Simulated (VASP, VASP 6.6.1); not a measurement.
# Lattice constants of 2H-WSe₂ from semilocal, dispersion-corrected and nonlocal van der Waals functionals

## What was measured

The out-of-plane lattice constant comes from "Gate-modulated conductance of few-layer WSe_2 field-effect transistors in the subgap regime: Schottky barrier transistor and subgap impurity states" (2015, arXiv:1505.00807). There, X-ray diffraction with Cu Kα radiation on a crystal grown by chemical vapor transport with iodine gave c = 12.95 Å. The in-plane constant, a = 3.282 ± 0.001 Å, is a literature value for the end member 2H-WSe₂, quoted in "Random anion distribution in MSxSe2−x (M = Mo, W) crystals and nanosheets" (2018, PubMed Central 9078701). The two constants therefore belong to different samples. No temperature is given with either value; room temperature is presumed here. The quoted a may well go back to the same refinement as the starting structure, with which it coincides, so the two are not counted as independent evidence.

| compared with | measured | source's wording or label | method |
| --- | --- | --- | --- |
| lattice constant c of the conventional cell (Å) | 12.95 | out-of-plane lattice constant c | X-ray diffraction (Cu K-alpha) |
| lattice constant a of the conventional cell (Å) | 3.282 ± 0.001 | a of 2H-WSe2 | quoted from earlier work |

Conditions are those given with the value in the passage it was taken from; "not stated" means there, and the paper may say more elsewhere. The values are a selection: others may have been left out beforehand as unlike or outlying.

## Approach

The aim is the cheapest level of theory that gives both lattice constants of the layered hexagonal polytype within 0.5 % of the measured values. For a this allows about 0.016 Å, for c about 0.065 Å. The limit is tight enough to expose a wrong description of the W–Se bonds in a or of the interlayer attraction in c, and it leaves room for the neglected motion of the nuclei. The calculations describe static nuclei at zero temperature, whereas a room-temperature crystal should be larger by roughly one to three tenths of a per cent in each direction, more along c than in the plane. A slightly short computed cell is thus preferable to a slightly long one.

The model is the six-atom cell in P6₃/mmc, nonmagnetic and without spin-orbit coupling. The starting structure is a diffraction cell with c = 12.960 Å, 0.01 Å above the reference, stretched by 3 % in volume before relaxation; cell and atoms are then relaxed with the symmetry kept. The work begins with a semilocal functional at a low plane-wave cutoff. The basis is improved next, and dispersion is added if the interlayer distance calls for it. The two constants are judged separately, because an error in the weak direction can hide behind a good volume.

System: WSe2, space group P6_3/mmc (WSe2); P6_3/mmc (No. 194), 6 atoms in the cell; conventional a = 3.282, c = 12.960 A, from a published structure refinement (COD).

On the selection of runs and values: 3 further cited values are not listed: repeats, values quoted from earlier work, more than five for one quantity or six quantities, or quantities that fewer than three runs give.

## 1. PBEsol at a low cutoff

PBEsol usually gives good bond lengths in solids at semilocal cost, so a should come out close to experiment. It contains no long-range dispersion, and c is expected to be too long. A cutoff of 220 eV makes this a light first calculation, but stresses are sensitive to the basis, and the result serves only as a starting point for a better converged one.

**Run 1.** VASP 6.6.1: PBEsol; 220 eV, 9x9x2 k mesh; cell and atoms relaxed, relaxed twice, LASPH on.

Key lines of the input:
```
ALGO = Normal
EDIFF = 1E-06
EDIFFG = -0.006
ENCUT = 220
GGA = PS
IBRION = 2
ISIF = 3
ISMEAR = 0
LASPH = .TRUE.
NBANDS = 24
NELM = 100
NSW = 50
PREC = Accurate
SIGMA = 0.03
KPOINTS: Gamma, 9 9 2
PAW data sets: W Se (PBE 64)
```

Command:
```
mpirun -np 8 vasp_std
```

Selected lines of the output:
```
  19 F= -.46651488E+02 E0= -.46651488E+02  d E =-.127909E-04
[second pass]
  11 F= -.46625084E+02 E0= -.46625084E+02  d E =-.975769E-05
  external PRESSURE =       0.0098158 kB  Pullay stress =       0.0000000 kB
```

Converged; 73 s on 8 cores of AMD EPYC 7R43 64, shared host.

| quantity | run 1 | measured | deviation |
| --- | --- | --- | --- |
| lattice constant c of the conventional cell (Å) | 12.902 | 12.95 | −0.048 (−0.4 %) |
| lattice constant a of the conventional cell (Å) | 3.257 | 3.282 ± 0.001 | −0.025 (−0.7 %) |
| volume of the conventional cell (Å³) | 118.57 |  |  |
| space group at the end | P6_3/mmc |  |  |
| pressure left at the end (GPa) | 0.0010 |  |  |

The in-plane constant is 0.7 % short and misses the limit. The interlayer direction is a surprise: c was expected to come out too long without dispersion, yet it lies 0.4 % below the measured value and inside the limit. Neither number can be credited to the functional yet. When the relaxation was restarted with a plane-wave basis rebuilt for the new cell, the final energy rose by about 0.026 eV, far more than the last steps of either pass change it. The basis at 220 eV thus depends noticeably on the cell, and a false stress from it can shift the soft c axis easily. The small pressure at the end only says that the relaxation has reached zero stress within this basis.

## 2. The same functional at 450 eV

Only the cutoff is raised, with functional, mesh and potentials unchanged. If the short c comes from the sparse basis, it should now grow beyond the measured value, as expected of a functional without long-range attraction. The in-plane constant should move less, since the bonds in the layer are stiff.

**Run 2.** VASP 6.6.1: PBEsol; 450 eV, 9x9x2 k mesh; cell and atoms relaxed, relaxed twice, LASPH on.

Key lines of the input, as changed from run 1:
```diff
- ENCUT = 220
+ ENCUT = 450
```

Selected lines of the output:
```
[second pass]
   1 F= -.46678810E+02 E0= -.46678810E+02  d E =-.466788E+02
 reached required accuracy - stopping structural energy minimisation
  external PRESSURE =      -0.2977188 kB  Pullay stress =       0.0000000 kB
```

Converged; 1.8 min on the same hardware.

| quantity | run 2 | measured | deviation |
| --- | --- | --- | --- |
| lattice constant c of the conventional cell (Å) | 13.222 | 12.95 | +0.272 (+2.1 %) |
| lattice constant a of the conventional cell (Å) | 3.268 | 3.282 ± 0.001 | −0.014 (−0.4 %) |
| volume of the conventional cell (Å³) | 122.32 |  |  |
| space group at the end | P6_3/mmc |  |  |
| pressure left at the end (GPa) | −0.0298 |  |  |

With the higher cutoff c grows by 0.32 Å and ends 2.1 % above the measured value, the direction to be expected without long-range attraction. The apparent success at 220 eV was an effect of the basis. The in-plane constant moves by only 0.011 Å and now lies within the limit, 0.4 % short.

The second pass stopped after one step with a pressure of about −0.03 GPa left. Along so soft an axis this can matter at the level of tenths of a per cent, but hardly for a miss of two per cent. Thermal expansion would lengthen c further, so it can't repair the miss either.

## 3. Adding pairwise dispersion

The missing ingredient is the attraction between the layers, and the D3 correction with Becke–Johnson damping supplies it at almost no extra cost per step. It should shorten c markedly. It also acts between atoms within a layer and will probably contract a a little, where only about 0.003 Å remains before the lower limit is crossed; the in-plane constant may therefore become the weak point.

**Run 3.** VASP 6.6.1: PBEsol + D3(BJ); 450 eV, 9x9x2 k mesh; cell and atoms relaxed, relaxed twice, LASPH on.

Key lines of the input, as changed from run 2:
```diff
+ IVDW = 12
```

Selected lines of the output:
```
[second pass]
DAV:  14    -0.465659327870E+02    0.41759E-06   -0.24987E-06  1176   0.862E-03
   1 F= -.49430398E+02 E0= -.49430398E+02  d E =-.494304E+02
```

Converged; 2.4 min on the same hardware.

| quantity | run 3 | measured | deviation |
| --- | --- | --- | --- |
| lattice constant c of the conventional cell (Å) | 12.416 | 12.95 | −0.534 (−4.1 %) |
| lattice constant a of the conventional cell (Å) | 3.228 | 3.282 ± 0.001 | −0.054 (−1.6 %) |
| volume of the conventional cell (Å³) | 112.03 |  |  |
| space group at the end | P6_3/mmc |  |  |
| pressure left at the end (GPa) | 0.0038 |  |  |

Dispersion shortens c as intended, but by 0.81 Å, three times what was needed, and c ends 4.1 % below experiment. The in-plane constant also shrinks more than anticipated and is now 1.6 % short. Both constants fail, and thermal expansion of a few tenths of a per cent can't account for either.

In the final structure the total energy lies about 2.9 eV per cell below the electronic part, which is the dispersion term. The contraction within the layer shows that this term also acts on the covalently bonded atoms, where PBEsol alone was already close. The correction is evidently too strong for this crystal in the form used here, with the damping parameters left at the program's defaults. The pairwise form as such is less suspect, since it usually gives good layer spacings in such crystals when added to PBE. The likelier cause is its combination with PBEsol, which binds more strongly from the outset.

## 4. LDA as a cheap alternative

Before a dearer nonlocal functional is tried, LDA deserves a test at the same settings. It often gives reasonable layer spacings although it contains no van der Waals attraction, because its overbinding takes the place of the missing term. The same overbinding usually shortens covalent bonds by about 1 %, so a is expected to be too short even if c comes out well.

**Run 4.** VASP 6.6.1: LDA; 450 eV, 9x9x2 k mesh; cell and atoms relaxed, relaxed twice, LASPH on.

Key lines of the input, as changed from run 2:
```diff
- GGA = PS
+ GGA = CA
- PAW data sets: W Se (PBE 64)
+ PAW data sets: W Se (LDA 64)
```

Selected lines of the output:
```
  external PRESSURE =       0.1561502 kB  Pullay stress =       0.0000000 kB
     3.249136130  0.000000000  0.000000000     0.307774116  0.177693469  0.000000000
     0.000000000  0.000000000 12.822832862     0.000000000  0.000000000  0.077985887
```

Converged; 96 s on the same hardware.

| quantity | run 4 | measured | deviation |
| --- | --- | --- | --- |
| lattice constant c of the conventional cell (Å) | 12.823 | 12.95 | −0.127 (−1.0 %) |
| lattice constant a of the conventional cell (Å) | 3.249 | 3.282 ± 0.001 | −0.033 (−1.0 %) |
| volume of the conventional cell (Å³) | 117.23 |  |  |
| space group at the end | P6_3/mmc |  |  |
| pressure left at the end (GPa) | 0.0156 |  |  |

LDA makes both constants 1.0 % too short, and both miss the limit. For a this is the usual overbinding. The layer spacing is far better than with PBEsol and D3, but this reflects LDA's spurious attraction between the layers and not a description of dispersion. The neglected thermal expansion would explain only a few tenths of a per cent of either shortfall.

## 5. A nonlocal van der Waals functional

PBEsol comes close in the plane and lacks attraction between the layers, while the pairwise correction overshoots in both directions. The next step is therefore a functional in which dispersion follows from the electron density itself. vdW-DF-cx combines a nonlocal correlation term with an exchange part chosen to be consistent with it, and it usually describes covalent bonds and layer spacings together. The nonlocal term adds some work to each electronic step, which is easily affordable for six atoms. Both constants are expected to lie near experiment, with a slightly short.

**Run 5.** VASP 6.6.1: vdW-DF-cx; 450 eV, 9x9x2 k mesh; cell and atoms relaxed, relaxed twice, LASPH on.

Key lines of the input, as changed from run 2:
```diff
+ AGGAC = 0
- GGA = PS
+ GGA = CX
+ LUSE_VDW = .TRUE.
```

Selected lines of the output:
```
  external PRESSURE =      -0.0123899 kB  Pullay stress =       0.0000000 kB
     3.279524475  0.000000000  0.000000000     0.304922256  0.176046946  0.000000000
     0.000000000  0.000000000 12.981414074     0.000000000  0.000000000  0.077033210
```

Converged; 14 min on the same hardware.

| quantity | run 5 | measured | deviation |
| --- | --- | --- | --- |
| lattice constant c of the conventional cell (Å) | 12.981 | 12.95 | +0.031 (+0.2 %) |
| lattice constant a of the conventional cell (Å) | 3.280 | 3.282 ± 0.001 | −0.002 (−0.1 %) |
| volume of the conventional cell (Å³) | 120.91 |  |  |
| space group at the end | P6_3/mmc |  |  |
| pressure left at the end (GPa) | −0.0012 |  |  |

Both constants lie within the limit: a is 0.1 % short and c is 0.2 % long. Compared with PBEsol at the same cutoff and mesh, the nonlocal functional shortens c by 0.24 Å and lengthens a by about 0.01 Å. It thus removes most of the excess in c without the contraction in the plane that came with the pairwise correction. The calculation took 14 min against 1.8 min for PBEsol, a clear rise in cost even on shared machines, though still a small one in absolute terms.

## 6. Cutoff and mesh tested with PBEsol

The change from 220 to 450 eV moved c by more than the whole tolerance, so the numerical settings need a test before the result is judged. The cutoff is raised to 600 eV in one calculation and the k mesh is refined to 12×12×4 in another, both with PBEsol, which is much cheaper and shares the potentials and settings. This measures the sensitivity for PBEsol only; for vdW-DF-cx it is an indication, not a proof of convergence. Changes in a should be very small, whereas c may still shift visibly because the PBEsol layers are held together so weakly.

**Run 6.** VASP 6.6.1: PBEsol; 600 eV, 9x9x2 k mesh; cell and atoms relaxed, relaxed twice, LASPH on.

Key lines of the input, as changed from run 1:
```diff
- ENCUT = 220
+ ENCUT = 600
```

Converged; 3.2 min on the same hardware.

**Run 7.** VASP 6.6.1: PBEsol; 450 eV, 12x12x4 k mesh; cell and atoms relaxed, relaxed twice, LASPH on.

Key lines of the input, as changed from run 2:
```diff
- KPOINTS: Gamma, 9 9 2
+ KPOINTS: Gamma, 12 12 4
```

Converged; 3.6 min on the same hardware.

| quantity | run 6 | run 7 | measured |
| --- | --- | --- | --- |
| lattice constant c of the conventional cell (Å) | 13.229 | 13.215 | 12.95 |
| lattice constant a of the conventional cell (Å) | 3.269 | 3.268 | 3.282 ± 0.001 |
| volume of the conventional cell (Å³) | 122.39 | 122.24 |  |
| space group at the end | P6_3/mmc | P6_3/mmc |  |
| pressure left at the end (GPa) | 0.0046 | 0.0113 |  |

Neither change matters at the accuracy sought. With the higher cutoff, and likewise with the denser mesh, c differs by 0.007 Å from the PBEsol value at 450 eV and 9×9×2, against a tolerance of about 0.065 Å; a changes by 0.001 Å at most. Shifts this small along the soft axis can come from where each relaxation happened to stop, so they are not assigned to cutoff or mesh.

For PBEsol, the excess in c of about 2 % therefore persists with better settings and belongs to the functional with these potentials, not to the basis or the sampling. For vdW-DF-cx the test is indirect. It makes a large error from the shared settings less likely, but the effect of a higher cutoff or a denser mesh on the nonlocal functional itself is not shown in this report.

## All runs against the measurement

| run | settings | lattice constant c of the conventional cell (Å) | deviation | lattice constant a of the conventional cell (Å) | deviation | cost |
| --- | --- | --- | --- | --- | --- | --- |
| 1 | PBEsol, 220 eV, 9x9x2 k mesh | 12.902 | −0.048 (−0.4 %) | 3.257 | −0.025 (−0.7 %) | 9.7 core-min |
| 2 | PBEsol, 450 eV, 9x9x2 k mesh | 13.222 | +0.272 (+2.1 %) | 3.268 | −0.014 (−0.4 %) | 14 core-min |
| 3 | PBEsol + D3(BJ), 450 eV, 9x9x2 k mesh | 12.416 | −0.534 (−4.1 %) | 3.228 | −0.054 (−1.6 %) | 19 core-min |
| 4 | LDA, 450 eV, 9x9x2 k mesh | 12.823 | −0.127 (−1.0 %) | 3.249 | −0.033 (−1.0 %) | 13 core-min |
| 5 | vdW-DF-cx, 450 eV, 9x9x2 k mesh | 12.981 | +0.031 (+0.2 %) | 3.280 | −0.002 (−0.1 %) | 1.9 core-h |
| 6 | PBEsol, 600 eV, 9x9x2 k mesh | 13.229 | +0.279 (+2.2 %) | 3.269 | −0.013 (−0.4 %) | 26 core-min |
| 7 | PBEsol, 450 eV, 12x12x4 k mesh | 13.215 | +0.265 (+2.0 %) | 3.268 | −0.014 (−0.4 %) | 29 core-min |
|  | measured | 12.95 |  | 3.282 ± 0.001 |  |  |

The runs in order, against the measurement:

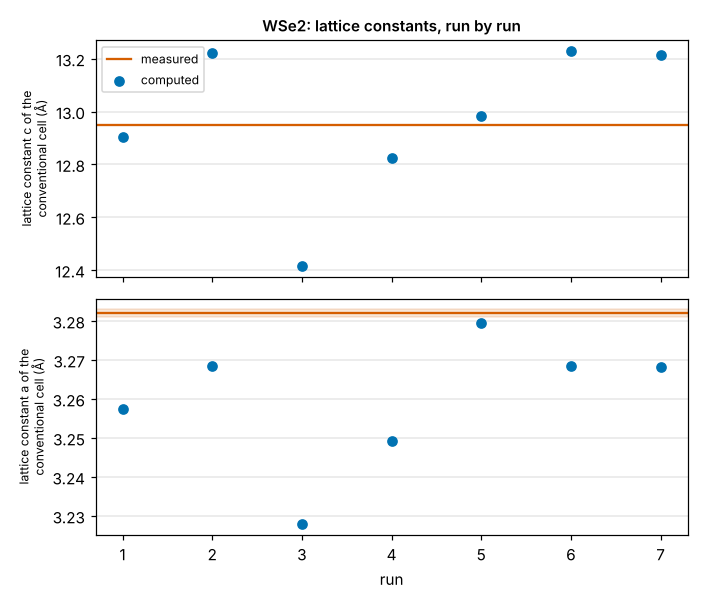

Further runs on the same system, made beside this series (convergence steps with loose settings among them):

| further | settings | lattice constant c of the conventional cell (Å) | deviation | lattice constant a of the conventional cell (Å) | deviation | cost |
| --- | --- | --- | --- | --- | --- | --- |
| F1 | r2SCAN + rVV10, 450 eV, 9x9x2 k mesh | 13.167 | +0.217 (+1.7 %) | 3.298 | +0.016 (+0.5 %) | 3.2 core-h |
| F2 | r2SCAN, 450 eV, 9x9x2 k mesh, relaxed twice | 13.653 | +0.703 (+5.4 %) | 3.310 | +0.028 (+0.9 %) | 88 core-min |
| F3 | PBEsol+U (W 6.2 eV), 450 eV, 9x9x2 k mesh | 13.247 | +0.297 (+2.3 %) | 3.305 | +0.023 (+0.7 %) | 12 core-min |
| F4 | LDA+U (W 6.2 eV), 450 eV, 9x9x2 k mesh, relaxed twice | 12.841 | −0.109 (−0.8 %) | 3.280 | −0.002 (−0.1 %) | 18 core-min |
| F5 | PBE, 450 eV, 9x9x2 k mesh, relaxed twice | 15.171 | +2.221 (+17.1 %) | 3.317 | +0.035 (+1.1 %) | 60 core-min |
| F6 | PBEsol, 450 eV, 4x4x1 k mesh | 13.509 | +0.559 (+4.3 %) | 3.267 | −0.015 (−0.4 %) | 5.5 core-min |
|  | measured | 12.95 |  | 3.282 ± 0.001 |  |  |

## Conclusion

vdW-DF-cx at 450 eV on a 9×9×2 mesh meets the target for both lattice constants: c is 0.2 % too long and a 0.1 % too short, for 1.9 core-hours. It is the only level shown that does so; PBE with D3, a plausible cheaper candidate, is not shown in this report. The call compares static cells directly with experiment. Thermal and zero-point expansion would lengthen both constants, bringing a to the measured value or slightly above it, but c close to the upper limit or just past it. The pass in c is therefore less comfortable than it looks.

Raising the cutoff from 220 to 450 eV was decisive, because it exposed the good c of the first PBEsol calculation as chance. The mesh probably matters too: with 4×4×1 points, where a second relaxation is not shown in this report, PBEsol gives c about 0.29 Å longer than with 9×9×2, while further refinement changes little. These checks hold for PBEsol; convergence of vdW-DF-cx itself is not shown in this report.

The agreement has a sound physical basis, since vdW-DF-cx includes nonlocal correlation between the layers. That ingredient alone does not seem to be enough: r2SCAN + rVV10 also includes it and leaves c 1.7 % too long (a second relaxation of that run is not shown in this report), which suggests that the form of the nonlocal term and the semilocal part paired with it matter as well. PBE puts c 17.1 % too high, PBEsol only about 2 %. PBEsol thus already holds the layers together to some extent, which is probably why adding D3 overshoots; the contraction in the plane fits this picture, since the pairwise term also pulls on the bonded atoms.

LDA + U reproduces a but leaves c 0.8 % short. With a large U on the tungsten of a nonmagnetic semiconductor, the good a is better read as compensation of LDA's overbinding than as improved physics.

[Logs are printed without paths, hosts, clocks, repeated set-up lines and the standing remarks that a program may print on its own settings, such as how far it seeks lower states.]

[The runs shown are a pick from a larger set of finished runs; failed, doubtful and other runs were left out of it ahead of writing. So were measured values far from every level or from commonly accepted values, and agreement can look better than it is. Lines of input and output are excerpts and may be shortened.]
